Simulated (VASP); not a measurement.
# Splitting of the Δ conduction valleys in zinc-blende BAs under biaxial (110) strain, TB-mBJ with spin-orbit coupling

Boron and arsenic differ little in electronegativity and form a tetrahedral, largely covalent network in BAs. All members of this series are that one compound; only the strain in the (110) plane changes. Without strain, the conduction-band minima along the six ⟨100⟩ directions are equal in energy. Strain divides them into a [001] pair and a group of four along [100] and [010], and so alters which electron masses and which intervalley scattering matter in a device layer. We calculate how far the two groups separate and which is lower, with TB-mBJ and spin-orbit coupling on cells relaxed with LDA. The splitting is the [100] valley energy less the [001] valley energy, so a positive value means that [001] is lowest.

## Systems and settings

The start is a typed prototype cell. The crystal was relaxed with LDA. Equal strain is imposed in the (110) plane; the strain along the normal is adjusted until the normal stress vanishes, and the atoms are relaxed with LDA. VASP 6.6.1, plane waves with PAW, cutoff 480 eV, no spin polarisation. Band edges are single points at TB-mBJ with spin-orbit coupling on these cells, k mesh 9×9×9, read on short lines of k points at the zone centre and through the valleys; energies are counted from the valence-band top at the zone centre.  All levels use the PAW data sets made with LDA.

Notes on method and selection:

- A valley's energy from the valence-band top holds the shift of that top as well as the shift of the valley.
- The TB-mBJ parameter c is fixed anew from the density of each cell, so it changes along the series.
- Runs that did not converge, have known faults or may not be shown are not listed, and runs on Ansatz's PAW sets soft_1 and soft_2 are kept to separate tables.

Columns:

- strain (%): strain in the plane (tension positive).
- splitting (eV): valley along [100] less valley along [001].
- Δ [001] (eV): minimum of the conduction band along Γ–X in the [001] direction.
- Δ [100] (eV): minimum of the conduction band along Γ–X in the [100] direction.
- L [111] (eV): conduction level at L along [111].
- L [-111] (eV): conduction level at L along [-111].
- Γ level (eV): lowest conduction level at Γ.

Input lines of one member:

```
PREC = Accurate
ENCUT = 480
EDIFF = 1E-06
NELM = 150
ISMEAR = 0
SIGMA = 0.02
LREAL = .FALSE.
ALGO = Normal
METAGGA = MBJ
LASPH = .TRUE.
LNONCOLLINEAR = .TRUE.
NBANDS = 18
GGA_COMPAT = .FALSE.
LSORBIT = .TRUE.
KPAR = 3
```

Command (options for logging and memory left out): `mpirun -np 3 vasp_ncl`

## Data

| member | strain (%) | splitting (eV) | Δ [001] (eV) | Δ [100] (eV) | L [111] (eV) | L [-111] (eV) | Γ level (eV) |
| --- | --- | --- | --- | --- | --- | --- | --- |
| −2 % | −2.0 | 0.247 | 1.342 | 1.589 | 3.602 | 3.175 | 3.473 |
| −1.5 % | −1.5 | 0.168 | 1.441 | 1.609 | 3.527 | 3.219 | 3.522 |
| −1 % | −1.0 | 0.103 | 1.525 | 1.628 | 3.453 | 3.256 | 3.566 |
| −0.5 % | −0.5 | 0.047 | 1.600 | 1.647 | 3.381 | 3.286 | 3.601 |
| 0 % | 0.0 | 0.000 | 1.665 | 1.665 | 3.309 | 3.309 | 3.622 |
| +0.5 % | 0.5 | ? | ? | ? | ? | ? | ? |
| +1 % | 1.0 | −0.068 | 1.678 | 1.610 | 3.078 | 3.242 | 3.516 |
| +1.5 % | 1.5 | −0.092 | 1.669 | 1.577 | 2.959 | 3.195 | 3.439 |
| +2 % | 2.0 | −0.107 | 1.654 | 1.546 | 2.844 | 3.144 | 3.357 |

Cells marked ? are withheld until the estimate has been made.

splitting (eV) against strain (%), members shown:

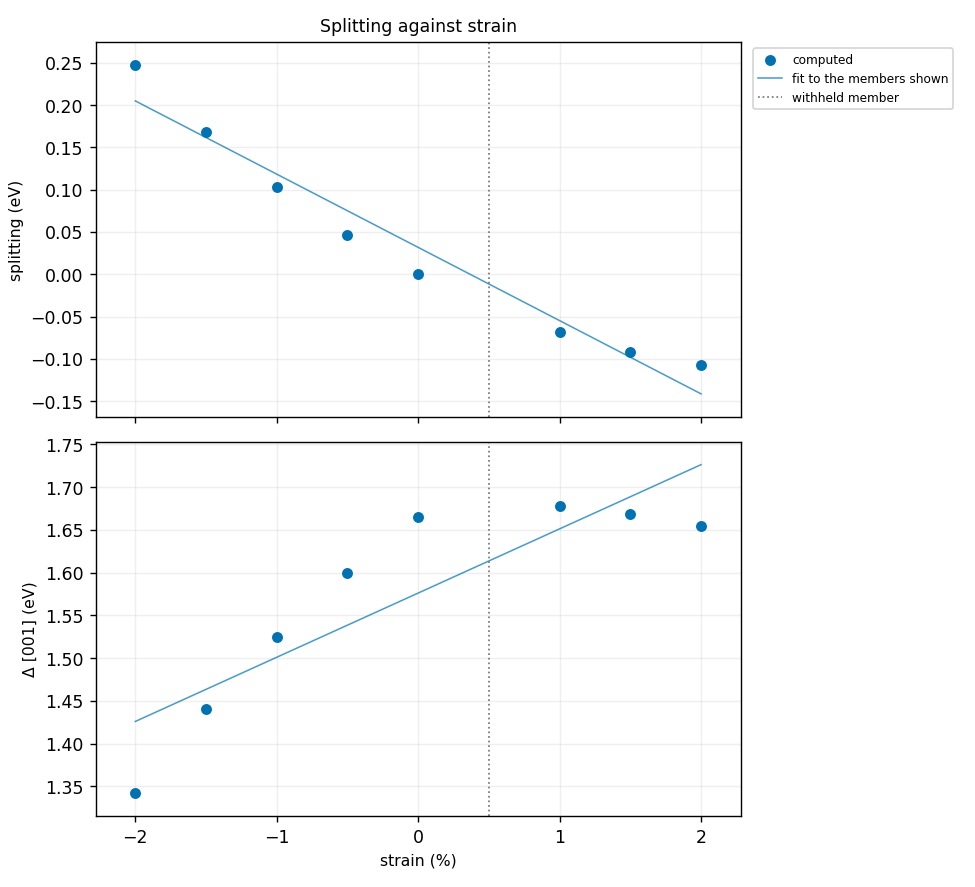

Least-squares fits to the members shown, with x = strain (%); R² and errors in the fitted variable (y, or ln y where the fit is in ln y):

| y | members | fit | R² | rms residual | leave-one-out rms | the same for the mean of the others |
| --- | --- | --- | --- | --- | --- | --- |
| splitting (eV) | 8 | y = 0.03184 − 0.08655 x | 0.95 | 0.026 | 0.037 | 0.14 |
| Δ [001] (eV) | 8 | y = 1.576 + 0.07507 x | 0.76 | 0.057 | 0.081 | 0.13 |

## What drives the series

Compression makes the [001] pair lowest, and the tensile members shown have the [100] group lowest. The splitting falls from 0.247 eV at −2 % through zero to −0.107 eV at +2 %. Between −1 % and +1 % the mean slope is (−0.068 − 0.103) / 2.0 = −0.086 eV per % strain. The levels at L and Γ stay more than 1 eV above the lowest Δ valley in every row shown.

The sign follows from the geometry. The [001] axis lies in the strained plane and takes the full imposed strain, whereas [100] is tilted out of it and takes the average of the in-plane strain and the opposite strain along the normal. In tetrahedral semiconductors a Δ valley normally rises when the crystal is stretched along the valley's own axis. Tension therefore raises [001] relative to [100], and compression does the reverse.

The response is not symmetric. The part that is the same for both signs of strain is (0.103 − 0.068) / 2 = 0.0175 eV at 1 % and (0.247 − 0.107) / 2 = 0.070 eV at 2 %, a fourfold rise for a doubled strain, as a quadratic term requires. A likely source is the shear that (110) strain produces in the cubic axes. It mixes the two lowest conduction bands near X and pushes the [001] valley down for either sign of strain, which adds to the splitting under compression and reduces it under tension.

The separate valley energies need more care, because they also contain the shift of the valence-band top. The lowest valley lies at 1.342 eV at −2 % and 1.546 eV at +2 %, against 1.665 eV without strain. Strain splits the valence-band top and raises its upper branch relative to the average, which helps to lower both figures. This shift cancels in the splitting.

## Predicting the missing value

Plain estimates from the members shown:

- +0.5 %, fit at x = 0.5: −0.011 eV
- +0.5 %, straight-line interpolation between 0 % and +1 %: w = (0.5 − 0.0) / (1.0 − 0.0) = 0.500, so 0.000 + 0.500 × (−0.068 − 0.000) = −0.034 eV

The straight-line fit is unsuitable here: it gives 0.032 eV at zero strain, where symmetry requires zero, and it misses the curvature. Interpolation between 0 % and +1 % is the better start, at −0.034 eV, but the splitting curves upward with strain, so a chord lies above it and the value should be more negative.

We include the curvature by passing a cubic through the members at −1, 0, +1 and +2 %. Midway between the inner two, it weights each inner point by 9/16 and each outer point by −1/16:

(−0.103 + 9 × 0.000 + 9 × (−0.068) + 0.107) / 16 = −0.038 eV.

The shift from the chord is thus −0.004 eV.

The same formula, moved to −0.5 % and using −2, −1, 0 and +1 %, gives (−0.247 + 9 × 0.103 + 9 × 0.000 + 0.068) / 16 = 0.047 eV, equal to the tabulated value. A cubic through −2, −1.5, −0.5 and 0 % tests the route at −1 %: 2/3 × (0.168 + 0.047) − 1/6 × (0.247 + 0.000) = 0.102 eV, against 0.103 eV in the table. These misses, together with the rounding of the entries, support an error of about 0.001 eV. The [100] group should therefore already be lowest at +0.5 %.

**Committed estimate, +0.5 %: splitting = −0.038 ± 0.001 eV.**

## How the estimate fared

| member | strain (%) | splitting (eV) | Δ [001] (eV) | Δ [100] (eV) | L [111] (eV) | L [-111] (eV) | Γ level (eV) |
| --- | --- | --- | --- | --- | --- | --- | --- |
| +0.5 % | 0.5 | −0.038 | 1.677 | 1.639 | 3.194 | 3.280 | 3.580 |

| member | estimate | splitting (eV) | computed | estimate − computed | miss in error bars |
| --- | --- | --- | --- | --- | --- |
| +0.5 % | committed | −0.038 | −0.038 | 0.000 | 0.0 |
| +0.5 % | fit | −0.011 | −0.038 | +0.027 |  |
| +0.5 % | interpolation | −0.034 | −0.038 | +0.004 |  |

splitting (eV) against strain (%):

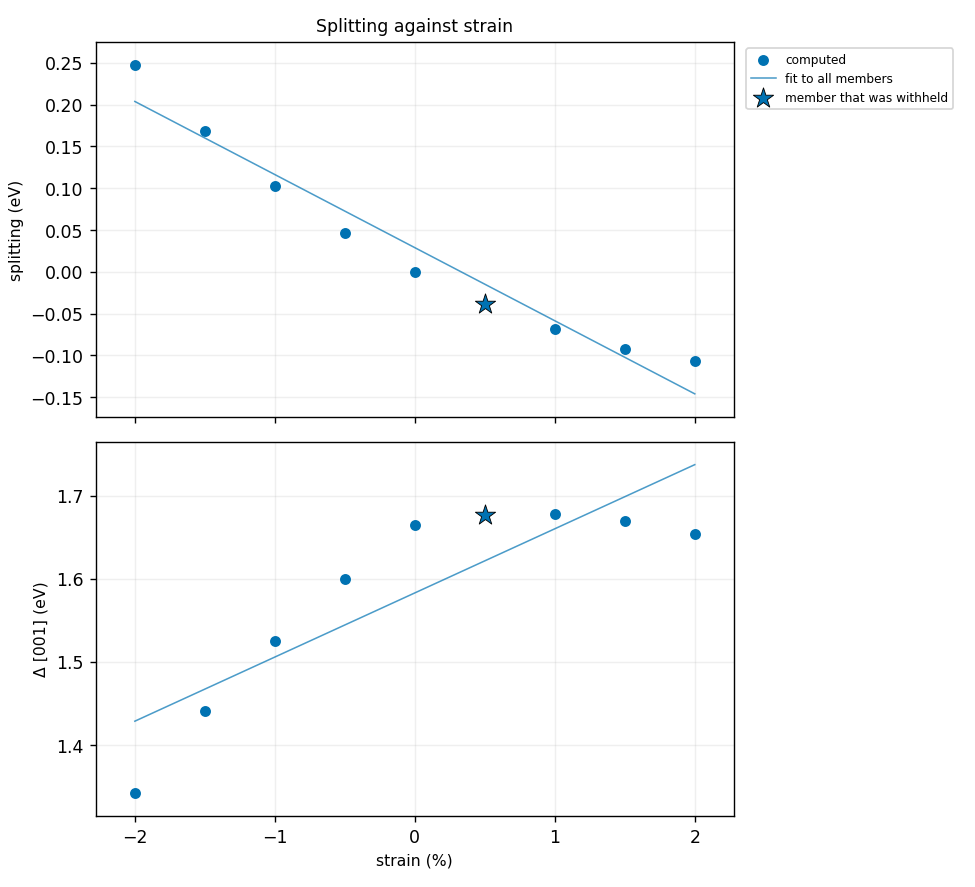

The computed splitting at +0.5 % is −0.038 eV, equal to our estimate at the printed precision and so inside the error bar of 0.001 eV. Straight-line interpolation came out 0.004 eV too high and the linear fit 0.027 eV too high. The [100] group is the lower one at this strain, as predicted.

The correction for curvature held in both sign and size. With the new member, the part of the splitting that is the same for both signs of strain is (0.047 − 0.038) / 2 = 0.0045 eV at 0.5 %. A quarter of the value found at 1 % would be 0.0175 / 4 = 0.0044 eV, so the quadratic term is already present at small strain. This is what shear mixing of the two lowest conduction bands near X would give. The agreement supports the quadratic form but does not identify its source, because the interpolation uses only the smoothness of the curve.

## Members off the line

Least-squares fits to the whole series, with x = strain (%); R² and errors in the fitted variable (y, or ln y where the fit is in ln y):

| y | members | fit | R² | rms residual | leave-one-out rms | the same for the mean of the others |
| --- | --- | --- | --- | --- | --- | --- |
| splitting (eV) | 9 | y = 0.02889 − 0.08743 x | 0.95 | 0.025 | 0.037 | 0.13 |
| Δ [001] (eV) | 9 | y = 1.583 + 0.07717 x | 0.75 | 0.057 | 0.080 | 0.13 |

Largest departures from the fit to the whole series:

| member | splitting (eV) | fit | computed − fit | in rms residuals |
| --- | --- | --- | --- | --- |
| −2 % | 0.247 | 0.204 | +0.043 | 1.7 |
| +2 % | −0.107 | −0.146 | +0.039 | 1.5 |
| 0 % | 0.000 | 0.029 | −0.029 | 1.1 |
| −0.5 % | 0.047 | 0.073 | −0.026 | 1.0 |

No member stands out; the largest departures, +0.043 eV at −2 % and +0.039 eV at +2 %, come from fitting a straight line to a curved dependence. The same misfit gives the negative departures at 0 % and −0.5 %, and the fitted 0.029 eV at zero strain contradicts the cubic symmetry, which makes the splitting zero there.

## Rules of thumb and their limits

Between −2 % and +2 %, compression puts the [001] pair lowest and tension the [100] and [010] group. With x the strain in %, the splitting in eV follows −0.086 x + 0.0175 x², where both coefficients come from the members at −1 % and +1 %. The typical miss over the nine members is about 0.003 eV, against 0.13 eV for the mean of the others, so a new strain within this range can be estimated to a few meV.

For a device layer at room temperature, with a thermal energy of roughly 0.026 eV and equal density-of-states masses in all valleys, −1 % strain places a fraction 1 / (1 + 2 × exp(−0.103 / 0.026)) = 0.96 of the electrons in the [001] pair.

Lattice vibrations are left out. They lower the gap, but most of that shift should be common to all Δ valleys and so matter less for the splitting than for the gap.

[Logs are printed without paths, hosts, clocks, repeated set-up lines and the standing remarks that a program may print on its own settings, such as how far it seeks lower states.]
